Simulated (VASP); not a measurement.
# Wall time of one SCF run on SrMg (Pm-3m) with different electronic solvers and mixing settings, LDA in VASP

SrMg in the two-atom Pm-3m cell joins two divalent metals, each with two s electrons outside closed shells. The chemistry is the same in every row; only the path to the self-consistent density differs.

Problem: how does the wall time of one SCF run depend on the solver and the mixing, and what times are to be expected for ALGO = All and for simple mixing with IMIX = 1, AMIX = 0.2? One such run is short, but a search through many candidate alloys repeats it thousands of times, so a factor of two in run time matters there. Times are in seconds for a whole run at fixed atomic positions, and energies are taken relative to the run with ALGO = Normal.

## Set-up

A cell from the Materials Project database. VASP 6.6.1, plane waves with PAW, LDA, 2 atoms at fixed positions, no spin polarisation, no spin-orbit coupling. Held fixed: cutoff 400 eV, k mesh 5×5×5, ISMEAR = -1, SIGMA = 0.05 eV and 2 MPI ranks. Each row is named by the tags or value that set it apart; differences are taken from the run 'ALGO = Normal'. All ran on AMD EPYC 7R43 64-Core Processor (Zen 3), shared with other work, so times are rough.

Notes on method and selection:

- Runs that did not converge, have known faults or may not be shown are not listed, and runs on Ansatz's PAW sets soft_1 and soft_2 are kept to separate tables.

Columns:

- energy error (meV/atom): energy per atom extrapolated to zero smearing, less that of the reference (ALGO = Normal).
- cycles: SCF cycles.

Input lines of one member:

```
PREC = Accurate
ENCUT = 400
EDIFF = 1E-06
NELM = 100
ISMEAR = -1
SIGMA = 0.05
LREAL = .FALSE.
ALGO = Normal
GGA = CA
NBANDS = 12
LORBIT = 11
KPAR = 2
ISIF = 2
```

Command (options for logging and memory left out): `mpirun -np 2 vasp_std`

## Numbers

| member | energy error (meV/atom) | cycles | wall time (s) |
| --- | --- | --- | --- |
| IMIX = 1, AMIX = 0.2 | 0.000 | 27 | ? |
| ALGO = Fast | 0.000 | 13 | 4.40 |
| ALGO = VeryFast | 0.002 | 30 | 8.20 |
| ALGO = Normal | 0.000 | 11 | 3.80 |
| AMIX = 0.8 | 0.000 | 13 | 4.40 |
| AMIX = 0.1, BMIX = 0.01 | 0.000 | 14 | 4.40 |
| ALGO = All | 0.000 | 15 | ? |
| ALGO = Damped | 0.010 | 60 | 9.40 |

Cells marked ? are withheld until the estimate has been made.

wall time (s) by member, members shown:

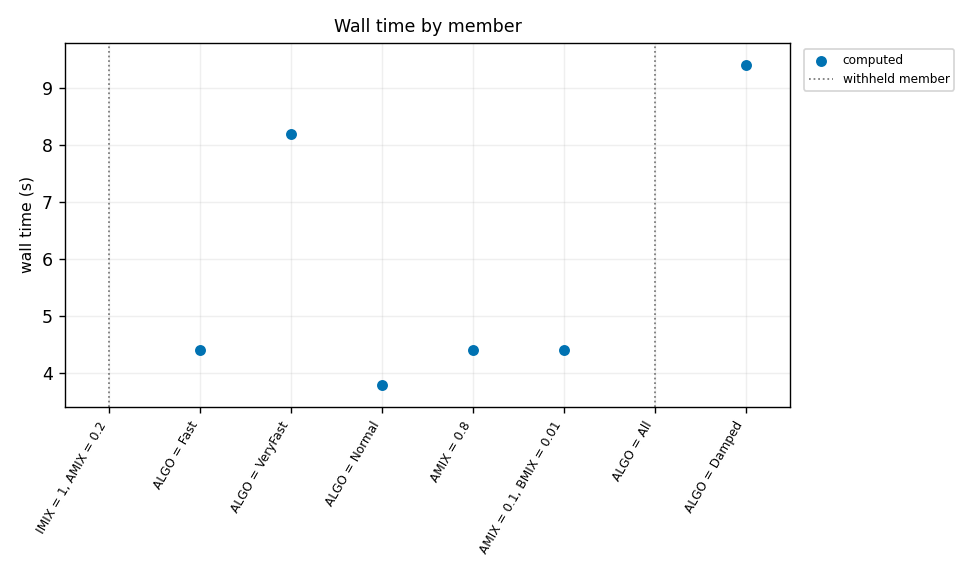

## Interpretation

Solution, first part. The six timed runs fall into two groups. Normal, Fast and the two runs with changed AMIX need 11 to 14 cycles and 3.80 to 4.40 s; on a shared host they count as equally fast. VeryFast and Damped take more than twice as long as Normal: 8.20 / 3.80 = 2.2 and 9.40 / 3.80 = 2.5.

The number of cycles accounts for most of this. From Normal to VeryFast the time rises by (8.20 − 3.80) / (30 − 11) = 0.232 s per cycle. VeryFast relies on residual minimisation, which draws each orbital towards a nearby eigenstate and therefore works best from good starting orbitals. A poor start is a likely reason for its 30 cycles, together with VASP's default of holding the density fixed for more of the first cycles with this solver. The method's usual advantage, less orthogonalisation, counts for little with only 12 bands.

Damped departs from this line. Its 60 cycles would cost 3.80 + 49 × 0.232 = 15.2 s at the same rate, against 9.40 s in the table. The sign is as expected, since a damped step moves all orbitals once along the gradient, while a Davidson cycle applies the Hamiltonian several times to each band. Cheap steps do not make up for their number here.

Changing AMIX has little effect, as expected for a small cell. Slow, long-wavelength sloshing of charge, which careful mixing is meant to suppress, needs a long cell to develop.

The energy gives no reason to prefer a slower solver. The largest departure, 0.010 meV/atom for Damped, is negligible for any alloy energy. It may arise because a slowly converging run meets the stopping test, which looks at the change per step, while some error remains.

## Estimating the withheld member

Plain estimates from the members shown:

- ALGO = All, mean of the 6 members shown: 5.77 s, standard deviation 2.2
- IMIX = 1, AMIX = 0.2, mean of the 6 members shown: 5.77 s, standard deviation 2.2

Solution, second part. The mean of 5.77 s mixes short and long runs and ignores the known cycle counts, so a line in the cycles is preferred: t = 1.25 + 0.232 × N, with the fixed part from 3.80 − 11 × 0.232 = 1.25 s. For the two runs with 13 cycles it gives 1.25 + 13 × 0.232 = 4.27 s, and for the one with 14 cycles 1.25 + 14 × 0.232 = 4.50 s, against 4.40 s in each case.

IMIX = 1, AMIX = 0.2 keeps the Normal solver. Simple mixing takes in at most a fifth of the density residual per cycle and learns nothing from earlier cycles, hence the 27 cycles. The line gives 1.25 + 27 × 0.232 = 7.5 s. Slopes from Normal to the 14-cycle and 13-cycle runs, 0.20 and 0.30 s per cycle, would give 7.0 and 8.6 s; half that spread, 0.8 s, is the error.

ALGO = All is a conjugate-gradient method for all bands together, closer in kind to Damped. A Damped step costs (9.40 − 1.25) / 60 = 0.136 s. A conjugate-gradient cycle makes a trial step and a corrector step, so it is counted as two: 1.25 + 15 × 2 × 0.136 = 5.3 s. The line for the other solvers would give 1.25 + 15 × 0.232 = 4.7 s. The error is set at 0.8 s, somewhat above that gap, because no timed run tests the count of two.

**Committed estimate, ALGO = All: wall time = 5.3 ± 0.8 s.**  
**Committed estimate, IMIX = 1, AMIX = 0.2: wall time = 7.5 ± 0.8 s.**

## How the estimate fared

| member | energy error (meV/atom) | cycles | wall time (s) |
| --- | --- | --- | --- |
| IMIX = 1, AMIX = 0.2 | 0.000 | 27 | 6.80 |
| ALGO = All | 0.000 | 15 | 4.20 |

| member | estimate | wall time (s) | computed | estimate − computed | miss in error bars |
| --- | --- | --- | --- | --- | --- |
| ALGO = All | committed | 5.30 | 4.20 | +1.10 | 1.4 |
| ALGO = All | mean | 5.77 | 4.20 | +1.57 |  |
| IMIX = 1, AMIX = 0.2 | committed | 7.50 | 6.80 | +0.70 | 0.9 |
| IMIX = 1, AMIX = 0.2 | mean | 5.77 | 6.80 | −1.03 |  |

wall time (s) by member:

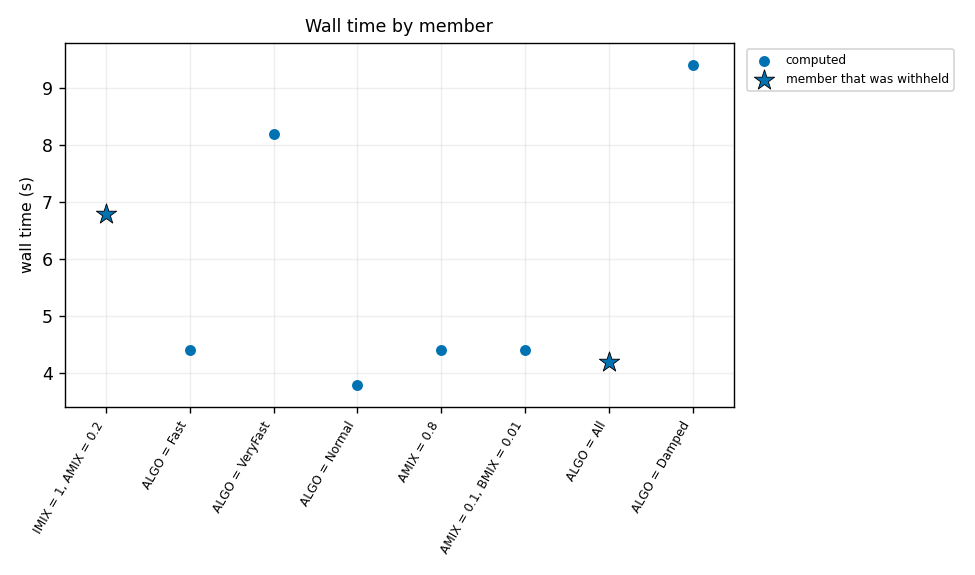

Both estimates were too high, and both came closer than the mean of the six runs. For IMIX = 1, AMIX = 0.2 the miss of 0.70 s lies inside the error bar. For ALGO = All the miss of 1.10 s lies outside it, at 1.4 error bars.

Counting cycles held for simple mixing. That run keeps the Normal solver, and its 16 extra cycles cost (6.80 − 3.80) / 16 = 0.19 s each, somewhat less than the 0.232 s taken from VeryFast.

Counting each cycle of ALGO = All as two Damped steps failed. The plain line in the cycles, at 4.7 s, would have been nearer to the 4.20 s found. The error bar was also too narrow: it rested on the gap between two routes that both came out too high. At 15 cycles ALGO = All is as fast as the runs with 11 to 14 cycles, within the roughness of the times.

## Residuals

Damped stands out. A line through the two runs that share the Normal solver and differ most in cycles has the slope (6.80 − 3.80) / 16 = 0.1875 s per cycle and the fixed part 3.80 − 11 × 0.1875 = 1.74 s. For Damped it gives 1.74 + 60 × 0.1875 = 13.0 s, which is too long by 13.0 − 9.40 = 3.6 s. The likeliest reason is the cheap single gradient step, which has the right sign. Damped is still the slowest run, because it needs so many steps.

VeryFast lies 0.8 s above the same line, about a tenth of its run time, which is too little to explain on a shared host. Its long run comes from its 30 cycles.

The run with IMIX = 1 is ordinary in time and energy, but its pressure, computed though not tabled, shifts the most from that of the Normal run. An error left in the density enters the energy only to second order and the pressure to first order, so an energy that agrees to 0.000 meV/atom does not guarantee an equally settled pressure.

## Rules of thumb and their limits

For this cell, run time broadly follows the number of cycles between 11 and 30; Damped, at 60 cycles, falls outside the rule. On the five runs that remain when Damped and the two runs used to draw it are left out, the line 1.74 + 0.1875 × N misses by typically 0.4 s, against a scatter of roughly 1.5 s about their mean; most of that scatter comes from VeryFast alone. The cycle count is known only after a run, so the time of an untried solver remains uncertain by about a factor of two.

In practice, a thousand such runs take 1000 × 3.80 / 3600 = 1.1 h with Normal and 1000 × 8.20 / 3600 = 2.3 h with VeryFast, on two ranks. For a small metallic cell like this one, the default solver and mixing are a sound choice.

These times hold for LDA without spin-orbit coupling. The PAW datasets were generated for PBE; since all runs share them, the comparison between solvers is not affected. Spin-orbit coupling would lengthen the run, since each orbital then has two components, and so would exact exchange, which adds a sum over pairs of orbitals.

[Logs are printed without paths, hosts, clocks, repeated set-up lines and the standing remarks that a program may print on its own settings, such as how far it seeks lower states.]
